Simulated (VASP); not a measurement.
# Uniaxial [001] strain of fcc Pd at PBEsol: Young's modulus, Poisson's ratio and the limit of linear elasticity

The decision to be served is the working strain of a force gauge made from a dislocation-free Pd whisker, loaded along [001] at room temperature and read with a single elastic constant. The brief, set here by choice, asks for a stress of at least 0.7 GPa in magnitude and a departure from the linear law of at most 5 %. Among strains that meet both, the smallest departure is preferred. The whisker has a cross-section of 1 µm² when unloaded.

The calculation supplies the transverse strain, the axial stress and the strain energy per atom for imposed strains from −2 % to +2 %. Strains and energies are measured against the crystal relaxed with PBEsol, and tension is positive. The linear law is defined by the two rows at ±0.5 %.

## Calculations

The start is an entry of the ASE's table of reference states database. The crystal was relaxed with PBEsol. Strain is imposed along [001]; the strain across the axis is adjusted until the stress across it vanishes, and the atoms are relaxed with PBEsol. VASP 6.6.1, plane waves with PAW, cutoff 450 eV, no spin polarisation, no spin-orbit coupling, k mesh 26×26×26, static lattice. The same in all rows: band gap on the k mesh at PBEsol: 0.000 eV.

Notes on method and selection:

- Runs that did not converge, have known faults or may not be shown are not listed, and runs on Ansatz's PAW sets soft_1 and soft_2 are kept to separate tables.

Columns:

- strain (%): strain along the axis (tension positive).
- transverse strain (%): strain across the axis.
- stress (GPa): stress along the axis, tension positive.
- strain energy (meV/atom): energy per atom above the relaxed crystal.

Input lines of one member:

```
PREC = Accurate
ENCUT = 450
EDIFF = 1E-07
NELM = 120
ISMEAR = 1
SIGMA = 0.15
LREAL = .FALSE.
ALGO = Normal
GGA = PS
NBANDS = 11
LASPH = .TRUE.
LORBIT = 11
KPAR = 2
IBRION = 1
NSW = 25
```

Command (options for logging and memory left out): `mpirun -np 2 vasp_std`

## The series

| member | strain (%) | transverse strain (%) | stress (GPa) | strain energy (meV/atom) |
| --- | --- | --- | --- | --- |
| −2 % | −2.0 | 0.898 | −1.586 | 1.505 |
| −1.5 % | −1.5 | 0.664 | −1.234 | 0.8548 |
| −1 % | −1.0 | 0.437 | −0.848 | 0.3888 |
| −0.5 % | −0.5 | 0.215 | −0.437 | 0.09862 |
| 0 % | 0.0 | 0.000 | 0.006 | 1.00×10⁻⁵ |
| +0.5 % | 0.5 | −0.212 | 0.461 | 0.1022 |
| +1 % | 1.0 | −0.417 | 0.938 | 0.4130 |
| +1.5 % | 1.5 | −0.618 | 1.429 | 0.9382 |
| +2 % | 2.0 | −0.815 | 1.928 | 1.683 |

transverse strain (%) against strain (%):

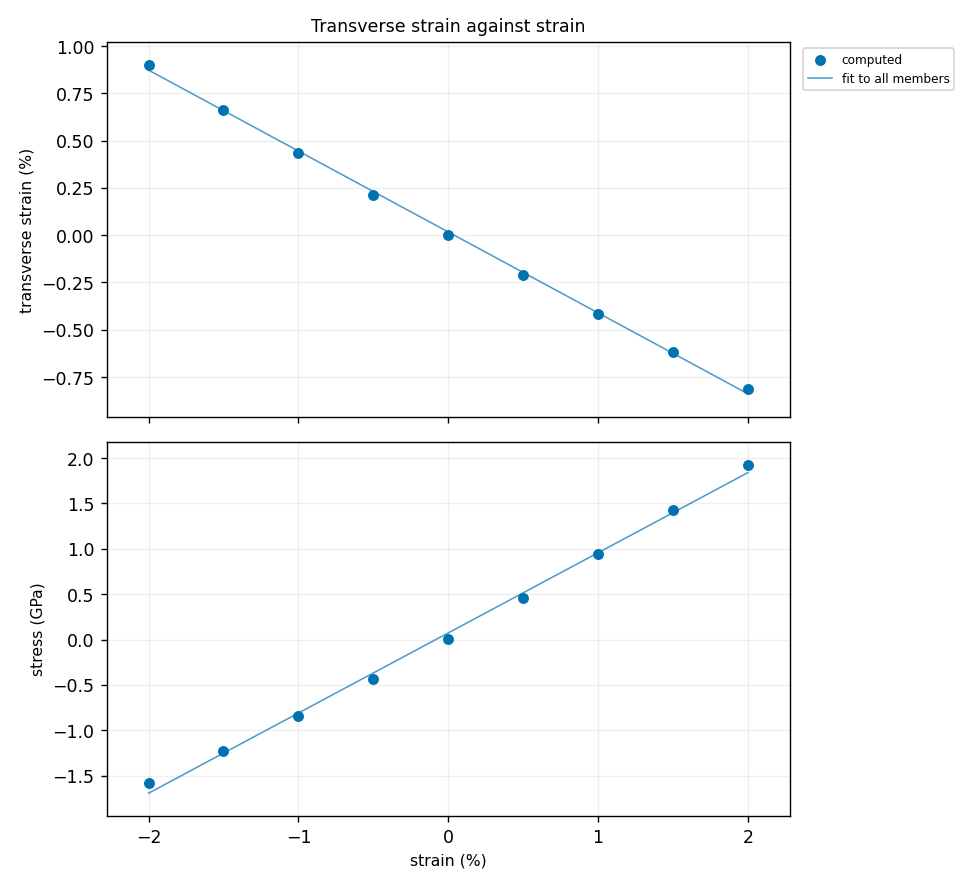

Least-squares fits to the whole series, with x = strain (%); R² and errors in the fitted variable (y, or ln y where the fit is in ln y):

| y | members | fit | R² | rms residual | leave-one-out rms | the same for the mean of the others |
| --- | --- | --- | --- | --- | --- | --- |
| transverse strain (%) | 9 | y = 0.01689 − 0.4278 x | 1.00 | 0.015 | 0.022 | 0.62 |
| stress (GPa) | 9 | y = 0.07300 + 0.8838 x | 1.00 | 0.062 | 0.089 | 1.3 |

## Reading the trend

Stress rises with strain throughout the series, while the transverse strain falls. The rows at ±0.5 % give a Young's modulus of (0.461 + 0.437) / 1.0 = 0.898 GPa per %, or 0.898 × 100 = 89.8 GPa, and a Poisson's ratio of (0.215 + 0.212) / 1.0 = 0.427.

For a cubic crystal loaded along [001], these two numbers fix the bulk modulus B = E / [3(1 − 2ν)] and the tetragonal shear modulus C′ = E / [2(1 + ν)]. With 1 − 2 × 0.427 = 0.146 and 1 + 0.427 = 1.427, they are B = 89.8 / (3 × 0.146) = 205 GPa and C′ = 89.8 / (2 × 1.427) = 31.5 GPa. From C₁₁ = B + 4C′/3 and C₁₂ = B − 2C′/3 it follows that C₁₁ is 205 + 4 × 31.5 / 3 = 247 GPa and C₁₂ is 205 − 2 × 31.5 / 3 = 184 GPa. C₄₄ does not enter this deformation. Because B is much larger than C′, the crystal changes shape more readily than volume, which is why Poisson's ratio lies close to 0.5. With one atom per primitive cell there is no internal displacement to soften the response.

The slope is not constant. Between neighbouring rows it grows from (1.586 − 1.234) / 0.5 = 0.704 GPa per % at the compressed end to (1.928 − 1.429) / 0.5 = 0.998 GPa per % at the stretched end. The bond lengths suggest why. At +2 % the four neighbours in the transverse plane move closer by 0.815 %; at −2 % the eight out-of-plane neighbours move closer by only about (2.0 − 0.898) / 2 = 0.55 %. The most strongly squeezed bonds therefore occur in tension, and repulsion steepens at short distance. Symmetry points the same way: compression along [001] leads fcc towards bcc, where the uniaxial stress must vanish again.

The strain energy follows suit, at 1.683 meV/atom for +2 % against 1.505 for −2 %.

## Outliers

Largest departures from the fit to the whole series:

| member | transverse strain (%) | fit | computed − fit | in rms residuals |
| --- | --- | --- | --- | --- |
| −2 % | 0.898 | 0.872 | +0.026 | 1.7 |
| +2 % | −0.815 | −0.839 | +0.024 | 1.5 |
| 0 % | 0.000 | 0.017 | −0.017 | 1.1 |
| −0.5 % | 0.215 | 0.231 | −0.016 | 1.0 |

The largest departures from the straight line for transverse strain are curvature, not faulty rows: both ends lie above the line and the centre below it. Part of this is geometry, since a cell of strictly constant volume would also bend upwards at both ends. The fitted stress intercept of 0.073 GPa likewise comes from curvature, here that of the stress; the unstrained row itself carries only 0.006 GPa, a remnant of the cell relaxation.

Stress and energy support each other. In the linear law the volume per atom is 2U / (σε), with 1 meV = 0.1602 GPa Å³. Averaged over the two signs of strain, the energy and the size of the stress are (0.09862 + 0.1022) / 2 = 0.1004 meV/atom and (0.437 + 0.461) / 2 = 0.449 GPa at 0.5 %, and (1.505 + 1.683) / 2 = 1.594 meV/atom and (1.586 + 1.928) / 2 = 1.757 GPa at 2 %. The volumes are then 2 × 0.1004 × 0.1602 / (0.449 × 0.005) = 14.3 Å³ and 2 × 1.594 × 0.1602 / (1.757 × 0.02) = 14.5 Å³. The rows can be trusted as a series, although the smearing of 0.15 eV could shift all moduli together, because the Fermi level of Pd lies near a steep edge of the d band.

## Choosing a member

The departure from linearity is d = σ / (0.898 ε) − 1, with σ in GPa and ε in %. The residual 0.006 GPa of the unstrained row is not subtracted. By symmetry it acts equally on all faces of the cubic cell, and relaxing the transverse stress, as in the strained rows, leaves only the fraction 1 − 2ν of it along the axis, or 0.006 × 0.146 = 0.001 GPa.

The rows at ±0.5 % are linear to 0.461 / 0.449 − 1 = 2.7 % but reach only 0.461 and 0.437 GPa in magnitude, so they fail the stress requirement. At +1 % the departure is 0.938 / 0.898 − 1 = 4.5 %, which passes; at −1 % its magnitude is 1 − 0.848 / 0.898 = 5.6 %, which narrowly fails. The rows at ±1.5 % and ±2 % depart further from the linear law and fail as well, the smallest departure among them being 1.429 / (0.898 × 1.5) − 1 = 6.1 % at +1.5 %.

The force is F = σA₀(1 + e)², where A₀ is the unloaded cross-section, e the transverse strain as a fraction, and 1 GPa µm² = 1 mN. At +1 % this gives 0.938 × 1 × (1 − 0.417 / 100)² = 0.930 mN, and at −1 % it gives 0.848 × 1 × (1 + 0.437 / 100)² = 0.855 mN in compression. The departures above refer to the true stress, on the current cross-section. The force departs less from a linear law, because the cross-section shrinks in tension and grows in compression: by 0.930 / 0.898 − 1 = 3.6 % at +1 %, 1 − 0.855 / 0.898 = 4.8 % at −1 % and 1.429 × (1 − 0.618 / 100)² / (0.898 × 1.5) − 1 = 4.8 % at +1.5 %. Judged by force, all three would pass, and +1 % would still have the smallest departure.

PBEsol moduli of transition metals are in error by roughly 10 %, in either direction, and warming from the static lattice to room temperature may soften the metal by roughly another 10 %. If both reduce the stress, +1 % retains 0.938 × 0.9 × 0.9 = 0.76 GPa and still passes, whereas −1 % retains 0.848 × 0.9 × 0.9 = 0.69 GPa and just fails. A common scale error in the stress cancels in d; an error in the curvature does not.

The pick is +1 %, the only row that meets both requirements in true stress and the one with the smallest departure if force is used instead. The nearest alternative, −1 %, narrowly misses the linearity limit in true stress, and a slender whisker may buckle under compression. The pick would be overturned if the real stress were more than 1 − 0.7 / 0.938 = 25 % below the computed one, or if the real curvature took the departure at +1 % beyond 5 %.

## Conclusions and limits

For Pd along [001] at PBEsol, one Young's modulus describes the computed stress to within 5 % at tensile strains up to 1 %, and to within 6 % at compressive strains of the same size. At 2 % it underestimates the tensile stress and overestimates the compressive one. A straight-line fit with R² of 1.00 does not reveal this; the slopes between neighbouring rows do.

The largest omitted effect is plastic flow. Pure, annealed bulk fcc metals typically yield at roughly 0.1 GPa or less, well below even the stresses computed at ±0.5 %. Dislocations thus lower the attainable stress by far more than the elastic nonlinearity changes it, and the working strain chosen here applies only to a crystal nearly free of them.

[Logs are printed without paths, hosts, clocks, repeated set-up lines and the standing remarks that a program may print on its own settings, such as how far it seeks lower states.]
